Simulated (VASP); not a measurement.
# Relaxed cell volume of HfB2 (P6/mmm) with LDA, GGA, meta-GGA and dispersion-corrected functionals

We have to choose a functional for relaxing HfB2 before it enters models of coatings, contacts or lattice-matched films, and to decide whether that functional should carry a dispersion term. An error in the cell passes directly into misfit strain and into any elastic or electronic property calculated at the relaxed geometry. We compare fully relaxed static cells at zero pressure with the diffraction cell of 9.90 Å³ per atom; a negative volume error means that the calculated cell is too small. The diffraction cell includes zero-point and thermal expansion, typically 0.5 to 2 % in volume, so a faultless static calculation should come out below zero by about that much.

## How the numbers were made

The start is the cell of a diffraction database, 9.90 Å³ per atom, whose temperature is that of the entry, mostly ambient. VASP 6.6.1, plane waves with PAW, cutoff 450 eV; cell and atoms fully relaxed at zero pressure at each level, static lattice, no spin polarisation, no spin-orbit coupling. All ran on Intel(R) Xeon(R) 6975P-C (Granite Rapids), shared with other work, so times are rough. The PAW data sets differ between levels: LDA sets for LDA; PBE sets for PBE, PBEsol, SCAN, r2SCAN and vdW-DF-cx. Non-spherical gradient terms inside the PAW spheres (LASPH) are on in the rows so marked and off in the others; they change results slightly and raise the cost.

Notes on method and selection:

- The diffraction cell holds zero-point and thermal expansion, typically 0.5 to 2 % in volume at room temperature, which a static relaxation lacks.
- Crystals whose PBE volume lies more than 1.5 % under or 25 % over the diffraction cell, or whose cell differs by over 0.3 % from another measurement, were left out.
- Non-spherical gradient terms in the PAW spheres (LASPH) were as a rule on for AM05, RPBE, BLYP, D4 and meta-GGAs and in later sessions, and off for LDA, PBE, PBEsol and D3; where rows differ in this, it bears on volumes, moments and cost.
- Runs that did not converge, have known faults or may not be shown are not listed, and runs on Ansatz's PAW sets soft_1 and soft_2 are kept to separate tables.

Columns:

- volume error (%): relaxed volume relative to the diffraction cell.
- a (Å): lattice constant a of the conventional cell.
- c (Å): lattice constant c of the conventional cell.
- cost per step (core-s): processor time per ionic step of the relaxation.

## Numbers

| member | volume error (%) | a (Å) | c (Å) | cost per step (core-s) | remark |
| --- | --- | --- | --- | --- | --- |
| r2SCAN | −0.43 | 3.132 | 3.482 | 17 | LASPH on |
| r2SCAN + rVV10 | −0.74 | 3.130 | 3.477 | 48 | LASPH on |
| PBE | ? | ? | ? | 4.7 |  |
| PBEsol + D3(BJ) | −3.93 | 3.103 | 3.422 | 4.8 |  |
| LDA | −3.72 | 3.102 | 3.433 | 4.6 |  |
| vdW-DF-cx | −0.63 | 3.134 | 3.472 | 26 | LASPH on |
| SCAN | −1.61 | 3.117 | 3.474 | 25 | LASPH on |
| PBEsol | −1.76 | 3.125 | 3.453 | 4.1 |  |

Cells marked ? are withheld until the estimate has been made.

volume error (%) by member, members shown:

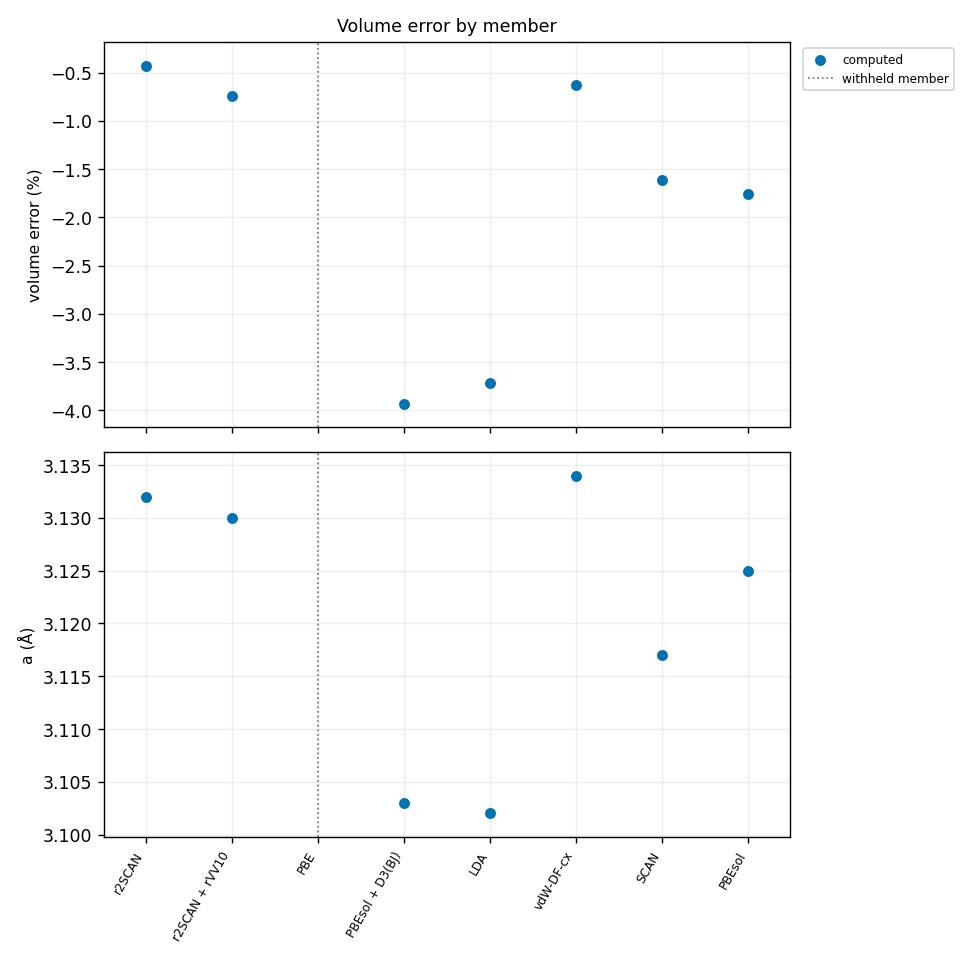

## What drives the series

All seven members shown give a cell smaller than the diffraction cell, from −0.43 % with r2SCAN to −3.93 % with PBEsol + D3(BJ). Missing expansion can account for most or all of the error with r2SCAN, r2SCAN + rVV10, vdW-DF-cx, SCAN and PBEsol, and their order of merit therefore stays open. It is too small to account for LDA or PBEsol + D3(BJ): even an allowance of 2 % leaves them roughly 1.7 and 1.9 points too small.

LDA binds too strongly. Gradient corrections to exchange favour an uneven density, which weakens the bonds and lengthens them. From LDA to PBEsol the volume error rises by −1.76 − (−3.72) = 1.96 points, although the PAW data sets change as well.

The two dispersion terms act very differently. Adding D3(BJ) to PBEsol changes the volume error by −3.93 − (−1.76) = −2.17 points, while adding rVV10 to r2SCAN changes it by −0.74 − (−0.43) = −0.31 points. The LASPH setting is the same within each pair.

Both terms add attraction and so compress the cell. D3 sums over atom pairs with coefficients that do not follow the metallic screening in this boride, which probably makes its pull too strong. r2SCAN already describes part of the medium-range attraction, and rVV10 is damped to add little at bonding distances.

With D3(BJ), $c$ shortens by 0.031 Å and $a$ by 0.022 Å, or 0.9 % and 0.7 %. The compression is thus nearly even, as expected where strong Hf–B bonds, and no van der Waals gap, join the layers.

For this crystal, adding D3(BJ) to PBEsol does not make the calculated volume more accurate. The rVV10 term changes little and raises the cost per step from 17 to 48 core-s.

## Prediction

Plain estimates from the members shown:

- PBE, mean of the 7 members shown: −1.83 %, standard deviation 1.3

The mean of the members shown, −1.83 %, is unsuitable for PBE. Crystals with a PBE volume more than 1.5 % under the diffraction cell were left out, so the PBE value must lie above that mean.

We use the step from LDA to PBEsol instead. PBE and PBEsol share the exchange enhancement factor $F_x(s) = 1 + \kappa - \kappa/(1 + \mu s^2/\kappa)$, where $s$ is the reduced density gradient. At small $s$ the correction to LDA is $\mu s^2$, with $\mu$ roughly 0.12 in PBEsol and 0.22 in PBE. If the volume shift from LDA is proportional to $\mu$, the PBE error is −3.72 + 1.96 × 0.22 / 0.12 = −0.13 %.

Two simplifications act in opposite directions. The gradient term in correlation, which contracts the cell, grows less than $\mu$ from PBEsol to PBE, so neglecting it makes the estimate too low. The levelling-off of $F_x$ at large $s$ makes it too high. We apply no further shift.

No other member shown differs from PBEsol only in these gradient coefficients, so the route has no direct test here. For the error bar we take the scatter among the four functionals beyond LDA without a separate dispersion add-on (PBEsol, SCAN, r2SCAN and vdW-DF-cx, the last with non-local correlation built in), whose standard deviation is 0.7 points. This is a substitute for the unknown scatter of the scaling itself.

**Committed estimate, PBE: volume error = −0.1 ± 0.7 %.**

## Outcome

| member | volume error (%) | a (Å) | c (Å) | cost per step (core-s) |
| --- | --- | --- | --- | --- |
| PBE | 0.42 | 3.141 | 3.491 | 4.7 |

| member | estimate | volume error (%) | computed | estimate − computed | miss in error bars |
| --- | --- | --- | --- | --- | --- |
| PBE | committed | −0.10 | 0.42 | −0.52 | 0.7 |
| PBE | mean | −1.83 | 0.42 | −2.25 |  |

volume error (%) by member:

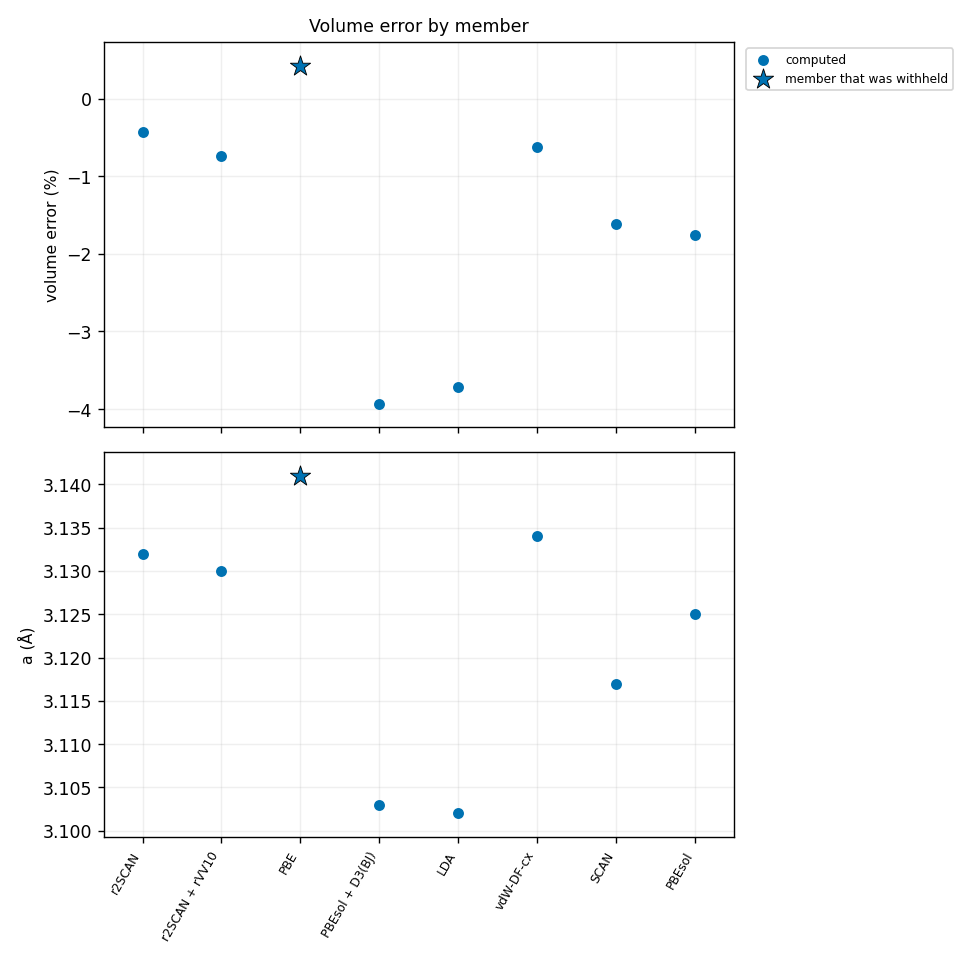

The computed PBE volume error is +0.42 %, against our estimate of −0.1 ± 0.7 %. The estimate was 0.52 points too low but inside its error bar, and much nearer than the mean of the other members, which missed by 2.25 points.

The argument that PBE expands the cell further than PBEsol, because its exchange responds more strongly to density gradients, gave the right direction and most of the size. Strict proportionality to $\mu$ was less exact. The shift from LDA is 0.42 − (−3.72) = 4.14 points for PBE and 1.96 points for PBEsol, a ratio of 4.14 / 1.96 = 2.11, where the coefficients gave 0.22 / 0.12 = 1.8.

The neglected gradient term in correlation has the right sign to explain the shortfall. The change of PAW data sets between LDA and PBEsol may also contribute, since it enters the step that we scaled.

## Outliers

PBEsol + D3(BJ) and LDA lie farthest from the mean of all eight members, (−1.83 × 7 + 0.42) / 8 = −1.55 %: they are lower by roughly 2.4 and 2.2 points. Both cells stayed practically unchanged in a second relaxation, so an unfinished relaxation is not the reason. For LDA the likeliest cause is its general overbinding, and for PBEsol + D3(BJ) a pairwise attraction that is too strong for a metallic boride. PBE is the farthest on the upper side, by roughly 2.0 points, as its stronger gradient correction to exchange would suggest.

SCAN is unremarkable in volume but not in shape. Its volume error is within 0.15 points of that of PBEsol, yet its $a$ is 0.008 Å shorter and its $c$ 0.021 Å longer. Its volume error also differs from that of the closely related r2SCAN by −1.61 − (−0.43) = −1.18 points. SCAN is known to be sensitive to the numerical integration grid, which may contribute to that gap, as may the real differences between the two functionals.

## Cost

LDA, PBE, PBEsol and PBEsol + D3(BJ) all cost between 4.1 and 4.8 core-s per step, which is no meaningful difference on shared processors. r2SCAN takes 17 / 4.7 = 3.6 times as long as PBE, and r2SCAN + rVV10 takes 48 / 4.7 = 10 times as long; part of this comes from LASPH, which is on only in the dearer rows.

For the cell volume alone, the extra time buys no demonstrable accuracy. PBEsol already falls within the range of −0.5 to −2 % expected of a faultless static calculation, and we would use it without D3(BJ) for routine relaxation of HfB2. It lies near the far end of that range, however, and a boride this stiff probably expands less than most crystals; if so, its cell is somewhat too small, and vdW-DF-cx or r2SCAN would be the better check where the volume is critical.

## Rules of thumb and their limits

PBE and r2SCAN come nearest to the diffraction cell as it stands, at +0.42 and −0.43 %, and PBEsol + D3(BJ) is the farthest from it. The agreement of PBE is partly a cancellation: with 0.5 to 2 % of expansion still to be added, its cell would be about 0.9 to 2.4 % too large. Because crystals with a PBE volume far below experiment were left out, this result says little about PBE for borides in general.

The omitted expansion is smaller than the full spread of 0.42 − (−3.93) = 4.35 points, but large enough to change the order of the better functionals. Scaling the gradient correction worked to about half a point in its single test, and the argument behind it holds only for functionals of the PBE form.

For film models, one functional should be used throughout. Straining an LDA-relaxed HfB2 layer to the PBE value of $a$ would introduce a false in-plane strain of (3.141 − 3.102) / 3.102 = 1.3 %.
